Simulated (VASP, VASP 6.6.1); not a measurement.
# Lattice constant of fcc aluminium from static relaxations with LDA, PBEsol and PBE

## The measurement

The reference is the cubic lattice constant of the aluminium matrix in a cast Al-3wt%Nd alloy, obtained by refinement of X-ray diffraction data taken with Cu K-alpha radiation: $a = 4.0496 \pm 0.0092$ Å ("Deformability, inherent mechanical properties and chemical bonding of Al11Nd3 in Al-Nd target material" (2024, arXiv:2404.18050)). The specimen is a two-phase casting and not pure aluminium. Neodymium hardly dissolves in the matrix, however, so the matrix can reasonably be treated as aluminium, and the same paper quotes 4.0494 Å for the pure metal, well inside the stated uncertainty. The temperature is not given with the value; room temperature is the natural assumption for such a measurement.

| compared with | measured | source's wording or label | method |
| --- | --- | --- | --- |
| lattice constant a of the conventional cell (Å) | 4.0496 ± 0.0092 | a of the cubic Al matrix | X-ray diffraction refinement, Cu K-alpha |

Conditions are those given with the value in the passage it was taken from; "not stated" means there, and the paper may say more elsewhere. The values are a selection: others may have been left out beforehand as unlike or outlying.

## Model and target

The aim is the cheapest level of theory that gives the lattice constant $a$ of the conventional cell within 1 % of the measured value, that is, within about 0.04 Å. This limit is wide enough for a static calculation to be compared directly with a diffraction value, and narrow enough to expose the errors of one to two per cent that common functionals make in lattice constants.

The model is the primitive fcc cell with one atom, nonmagnetic, with its volume relaxed and its symmetry kept. The starting cell comes from a published refinement with $a = 4.050$ Å, practically the reference value, and is stretched by 3 % in volume so that the relaxation has a real distance to cover. Thermal expansion and zero-point motion are absent from the calculation; together they should lengthen $a$ by roughly half a per cent at room temperature, so a sound static value ought to lie somewhat below the measured one.

The work begins with a semilocal functional on a light k mesh. The mesh is then made denser, since a simple metal with a sharp Fermi surface is sensitive to it, and the functional is changed if the converged result calls for it.

System: Al; Fm-3m (No. 225), 1 atom in the cell; conventional a = 4.050 A, from a published structure refinement (COD).

On the selection of runs and values: 5 further cited values are not listed: repeats, values quoted from earlier work, more than five for one quantity or six quantities, or quantities that fewer than three runs give.

## 1. PBEsol on a light mesh

PBEsol was designed for equilibrium structures of solids and costs about as much as any other semilocal functional. A 10x10x10 mesh is a light start for a one-atom metallic cell. The relaxed $a$ is expected slightly below experiment, with a sampling error still to be determined.

**Run 1.** VASP 6.6.1: PBEsol; 450 eV, 10x10x10 k mesh; cell and atoms relaxed, relaxed twice.

Key lines of the input:
```
ALGO = Normal
EDIFF = 1E-06
EDIFFG = -0.006
ENCUT = 450
GGA = PS
IBRION = 2
ISIF = 3
ISMEAR = 1
NBANDS = 7
NELM = 100
NSW = 50
PREC = Accurate
SIGMA = 0.15
KPOINTS: Gamma, 10 10 10
PAW data sets: Al (PBE 64)
```

Command:
```
mpirun -np 8 vasp_std
```

Selected lines of the output:
```
   1 F= -.40607303E+01 E0= -.40597086E+01  d E =-.406073E+01
   2 F= -.40729604E+01 E0= -.40723489E+01  d E =-.122301E-01
[second pass]
   1 F= -.40728657E+01 E0= -.40722542E+01  d E =-.407287E+01
 reached required accuracy - stopping structural energy minimisation
  external PRESSURE =       0.1771108 kB  Pullay stress =       0.0000000 kB
  volume of cell :       16.12
      direct lattice vectors                 reciprocal lattice vectors
     0.000000000  2.005186622  2.005186622    -0.249353349  0.249353349  0.249353349
     2.005186622  0.000000000  2.005186622     0.249353349 -0.249353349  0.249353349
     2.005186622  2.005186622  0.000000000     0.249353349  0.249353349 -0.249353349
```

Converged; 6.2 s on 8 cores of AMD EPYC 7R43 64, shared host.

| quantity | run 1 | measured | deviation |
| --- | --- | --- | --- |
| lattice constant a of the conventional cell (Å) | 4.0104 | 4.0496 ± 0.0092 | −0.0392 (−1.0 %) |
| volume of the conventional cell (Å³) | 64.50 |  |  |
| space group at the end | Fm-3m |  |  |
| pressure left at the end (GPa) | 0.01771 |  |  |

The relaxed constant is 0.0392 Å below the measured one, just inside the limit of about 0.04 Å. The sign is the one expected of a static calculation, but the deviation is larger than the missing thermal and zero-point expansion would explain. With so thin a margin, a small sampling error could decide between pass and miss, so no judgement is made on this mesh.

## 2. Denser k meshes for PBEsol

Aluminium has partly filled bands crossing the Fermi level, and the stress converges with the mesh only as fast as the occupation around the Fermi surface is resolved. Two denser meshes, 18x18x18 and 26x26x26, are run with everything else unchanged. Their mutual difference will show whether the first of them is already sufficient, and for one atom in the cell the added cost should remain small.

**Run 2.** VASP 6.6.1: PBEsol; 450 eV, 18x18x18 k mesh; cell and atoms relaxed, relaxed twice.

Key lines of the input, as changed from run 1:
```diff
- KPOINTS: Gamma, 10 10 10
+ KPOINTS: Gamma, 18 18 18
```

Selected lines of the output:
```
   1 F= -.40778410E+01 E0= -.40777034E+01  d E =-.407784E+01
   3 F= -.40895810E+01 E0= -.40892086E+01  d E =-.117401E-01
     0.000000000  2.007978297  2.007978297    -0.249006675  0.249006675  0.249006675
```

Converged; 16 s of wall time.

**Run 3.** VASP 6.6.1: PBEsol; 450 eV, 26x26x26 k mesh; cell and atoms relaxed, relaxed twice.

Key lines of the input, as changed from run 1:
```diff
- KPOINTS: Gamma, 10 10 10
+ KPOINTS: Gamma, 26 26 26
```

Selected lines of the output:
```
   1 F= -.40814977E+01 E0= -.40814493E+01  d E =-.408150E+01
   3 F= -.40934448E+01 E0= -.40933907E+01  d E =-.119472E-01
     0.000000000  2.007920026  2.007920026    -0.249013902  0.249013902  0.249013902
```

Converged; 34 s of wall time.

| quantity | run 2 | run 3 | measured |
| --- | --- | --- | --- |
| lattice constant a of the conventional cell (Å) | 4.0160 | 4.0158 | 4.0496 ± 0.0092 |
| volume of the conventional cell (Å³) | 64.77 | 64.76 |  |
| space group at the end | Fm-3m | Fm-3m |  |
| pressure left at the end (GPa) | 0.00246 | 0.00413 |  |

Going from 10 to 18 divisions lengthens $a$ by 0.0056 Å; going on to 26 changes it by no more than 0.0002 Å. The total energy still falls by about 4 meV in the last step, but this shift is nearly the same at all volumes near equilibrium and hardly moves the minimum. For the lattice constant the 18x18x18 mesh is sufficient.

On the densest mesh PBEsol gives 4.0158 Å, which is 0.0338 Å or 0.8 % below the reference. This is a narrow pass: the remaining margin is smaller than the stated experimental uncertainty of 0.0092 Å.

## 3. Plane-wave cutoff for PBEsol

With the mesh settled, the basis is the next numerical setting that could use up the margin. The cutoff is raised from 450 to 600 eV on the 18x18x18 mesh. Aluminium has a soft pseudopotential without semicore states here, so only a small change is expected.

**Run 4.** VASP 6.6.1: PBEsol; 600 eV, 18x18x18 k mesh; cell and atoms relaxed, relaxed twice.

Key lines of the input, as changed from run 2:
```diff
- ENCUT = 450
+ ENCUT = 600
```

Selected lines of the output:
```
  external PRESSURE =       0.0516606 kB  Pullay stress =       0.0000000 kB
     0.000000000  2.008029868  2.008029868    -0.249000280  0.249000280  0.249000280
```

Converged; 23 s of wall time.

| quantity | run 4 | measured | deviation |
| --- | --- | --- | --- |
| lattice constant a of the conventional cell (Å) | 4.0161 | 4.0496 ± 0.0092 | −0.0335 (−0.8 %) |
| volume of the conventional cell (Å³) | 64.77 |  |  |
| space group at the end | Fm-3m |  |  |
| pressure left at the end (GPa) | 0.00517 |  |  |

The higher cutoff leaves $a$ at 4.0161 Å, within 0.0001 Å of the value at 450 eV. A change this small can't be separated from the stopping threshold of the relaxations, and 450 eV is sufficient for PBEsol. The narrow pass therefore survives both numerical checks, and the remaining 0.8 % is more likely to come from the functional, the potential, the missing thermal and zero-point expansion, or the reference itself. The smearing, kept at one setting, is a further possible but probably small contribution.

## 4. LDA and PBE for comparison

Two other functionals of similar or lower formal cost can show whether the narrow margin is particular to PBEsol. LDA is the simplest of all and usually binds solids too tightly, so it is expected to fall short of the limit. PBE usually gives longer lattice constants than PBEsol and should come closer to the measured value. Both are run at 450 eV on the 18x18x18 mesh.

**Run 5.** VASP 6.6.1: LDA; 450 eV, 18x18x18 k mesh; cell and atoms relaxed, relaxed twice.

Key lines of the input, as changed from run 2:
```diff
- GGA = PS
+ GGA = CA
- PAW data sets: Al (PBE 64)
+ PAW data sets: Al (LDA 64)
```

Selected lines of the output:
```
     0.000000000  1.992331803  1.992331803    -0.250962214  0.250962214  0.250962214
```

Converged; 14 s of wall time.

**Run 6.** VASP 6.6.1: PBE; 450 eV, 18x18x18 k mesh; cell and atoms relaxed, relaxed twice.

Key lines of the input, as changed from run 2:
```diff
- GGA = PS
+ GGA = PE
```

Selected lines of the output:
```
   1 F= -.37383095E+01 E0= -.37381671E+01  d E =-.373831E+01
   2 F= -.37433572E+01 E0= -.37430159E+01  d E =-.504767E-02
   3 F= -.37434171E+01 E0= -.37430904E+01  d E =-.510758E-02
[second pass]
   1 F= -.37433617E+01 E0= -.37430350E+01  d E =-.374336E+01
 reached required accuracy - stopping structural energy minimisation
  external PRESSURE =       0.0163015 kB  Pullay stress =       0.0000000 kB
  volume of cell :       16.49
      direct lattice vectors                 reciprocal lattice vectors
     0.000000000  2.020282662  2.020282662    -0.247490121  0.247490121  0.247490121
     2.020282662  0.000000000  2.020282662     0.247490121 -0.247490121  0.247490121
     2.020282662  2.020282662  0.000000000     0.247490121  0.247490121 -0.247490121
```

Converged; 16 s of wall time.

| quantity | run 5 | run 6 | measured |
| --- | --- | --- | --- |
| lattice constant a of the conventional cell (Å) | 3.9847 | 4.0406 | 4.0496 ± 0.0092 |
| volume of the conventional cell (Å³) | 63.27 | 65.97 |  |
| space group at the end | Fm-3m | Fm-3m |  |
| pressure left at the end (GPa) | 0.00507 | 0.00163 |  |

LDA gives 3.9847 Å, 0.0649 Å or 1.6 % below the reference, and misses the limit clearly. PBE gives 4.0406 Å, only 0.0090 Å or 0.2 % below it. The order LDA, PBEsol, PBE is the expected one, and the spread between the functionals is far larger than the changes seen with mesh and cutoff in PBEsol.

PBE takes the same settings as PBEsol and belongs to the same class of cost, but its pass is not a narrow one: the distance left to the limit is more than three times the stated experimental uncertainty. It also uses the aluminium potential with the functional for which that potential was generated, whereas the PBEsol runs combine a PBE potential with another functional. The mesh and cutoff tests were made with PBEsol and do not formally carry over. Still, a shift in PBE even as large as the one PBEsol showed between its two coarser meshes would leave the result well inside the limit. A dearer functional is not needed for this target, and the work ends here.

## Collected results

| run | settings | lattice constant a of the conventional cell (Å) | deviation | cost |
| --- | --- | --- | --- | --- |
| 1 | PBEsol, 450 eV, 10x10x10 k mesh | 4.0104 | −0.0392 (−1.0 %) | under 1 core-min |
| 2 | PBEsol, 450 eV, 18x18x18 k mesh | 4.0160 | −0.0336 (−0.8 %) | 2.1 core-min |
| 3 | PBEsol, 450 eV, 26x26x26 k mesh | 4.0158 | −0.0338 (−0.8 %) | 4.5 core-min |
| 4 | PBEsol, 600 eV, 18x18x18 k mesh | 4.0161 | −0.0335 (−0.8 %) | 3 core-min |
| 5 | LDA, 450 eV, 18x18x18 k mesh | 3.9847 | −0.0649 (−1.6 %) | 1.9 core-min |
| 6 | PBE, 450 eV, 18x18x18 k mesh | 4.0406 | −0.0090 (−0.2 %) | 2.1 core-min |
|  | measured | 4.0496 ± 0.0092 |  |  |

The runs in order, against the measurement:

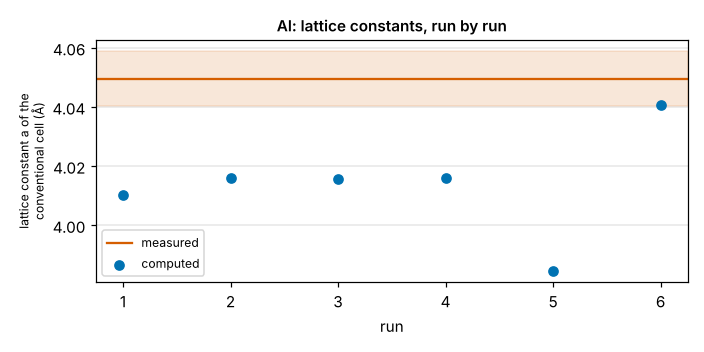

Further runs on the same system, made beside this series (convergence steps with loose settings among them):

| further | settings | lattice constant a of the conventional cell (Å) | deviation | cost |
| --- | --- | --- | --- | --- |
| F1 | r2SCAN, 450 eV, 18x18x18 k mesh, LASPH on | 3.9865 | −0.0631 (−1.6 %) | 10 core-min |
| F2 | r2SCAN + rVV10, 450 eV, 18x18x18 k mesh, LASPH on | 3.9824 | −0.0672 (−1.7 %) | 17 core-min |
| F3 | rev-vdW-DF2, 450 eV, 18x18x18 k mesh, LASPH on | 4.0379 | −0.0117 (−0.3 %) | 6.9 core-min |
| F4 | vdW-DF-cx, 450 eV, 18x18x18 k mesh, LASPH on | 4.0291 | −0.0205 (−0.5 %) | 5.9 core-min |
| F5 | optB86b-vdW, 450 eV, 18x18x18 k mesh, LASPH on | 4.0347 | −0.0149 (−0.4 %) | 6.3 core-min |
| F6 | PBEsol + D3(BJ), 450 eV, 18x18x18 k mesh | 3.9628 | −0.0868 (−2.1 %) | 2.1 core-min |
| F7 | PBE + D3(BJ), 450 eV, 18x18x18 k mesh | 3.9815 | −0.0681 (−1.7 %) | 2.2 core-min |
| F8 | AM05, 450 eV, 18x18x18 k mesh | 4.0069 | −0.0427 (−1.1 %) | 2.2 core-min |
| F9 | RPBE, 450 eV, 18x18x18 k mesh | 4.0627 | +0.0131 (+0.3 %) | 2 core-min |
|  | measured | 4.0496 ± 0.0092 |  |  |

## Outcome

PBE at 450 eV on an 18x18x18 mesh meets the 1 % target. It gives 4.0406 Å, 0.2 % below the measured constant, for about two core-minutes. PBEsol also passes, but narrowly, and LDA misses.

The close agreement of PBE is partly a cancellation. Thermal expansion and zero-point motion are absent from the runs, and the half per cent allowed for them at the start was too low. For aluminium, warming from absolute zero to room temperature lengthens $a$ by about 0.4 %, and zero-point motion adds roughly 0.3 %. With that allowance PBE comes out about half a per cent too long, while PBEsol is nearly right. Both stay within the target. PBE is thus closer to the raw room-temperature value, but PBEsol probably describes the static lattice better; the allowance is an estimate, and the experimental uncertainty of 0.0092 Å blurs the comparison further.

The denser mesh mattered most among the numerical steps: it lengthened the PBEsol value by 0.0056 Å, whereas the higher cutoff changed practically nothing. Neither check is shown in this report for PBE itself, though its margin is several times the larger of these shifts. The influence of the smearing width and of the choice of aluminium potential is not shown either.

The further runs give no reason to pay for a dearer functional. r2SCAN misses by 1.6 % at a higher cost. The three van der Waals density functionals F3 to F5 pass, but the target doesn't require them. Adding D3(BJ) to PBE shortens $a$ by about 0.06 Å and turns the pass into a miss; a likely reason is that pairwise dispersion terms neglect the screening by the conduction electrons. RPBE passes at a cost similar to that of PBE, but its value already lies above experiment, and the missing expansion would carry it further away.

[Logs are printed without paths, hosts, clocks, repeated set-up lines and the standing remarks that a program may print on its own settings, such as how far it seeks lower states.]

[The runs shown are a pick from a larger set of finished runs; failed, doubtful and other runs were left out of it ahead of writing. So were measured values far from every level or from commonly accepted values, and agreement can look better than it is. Lines of input and output are excerpts and may be shortened.]
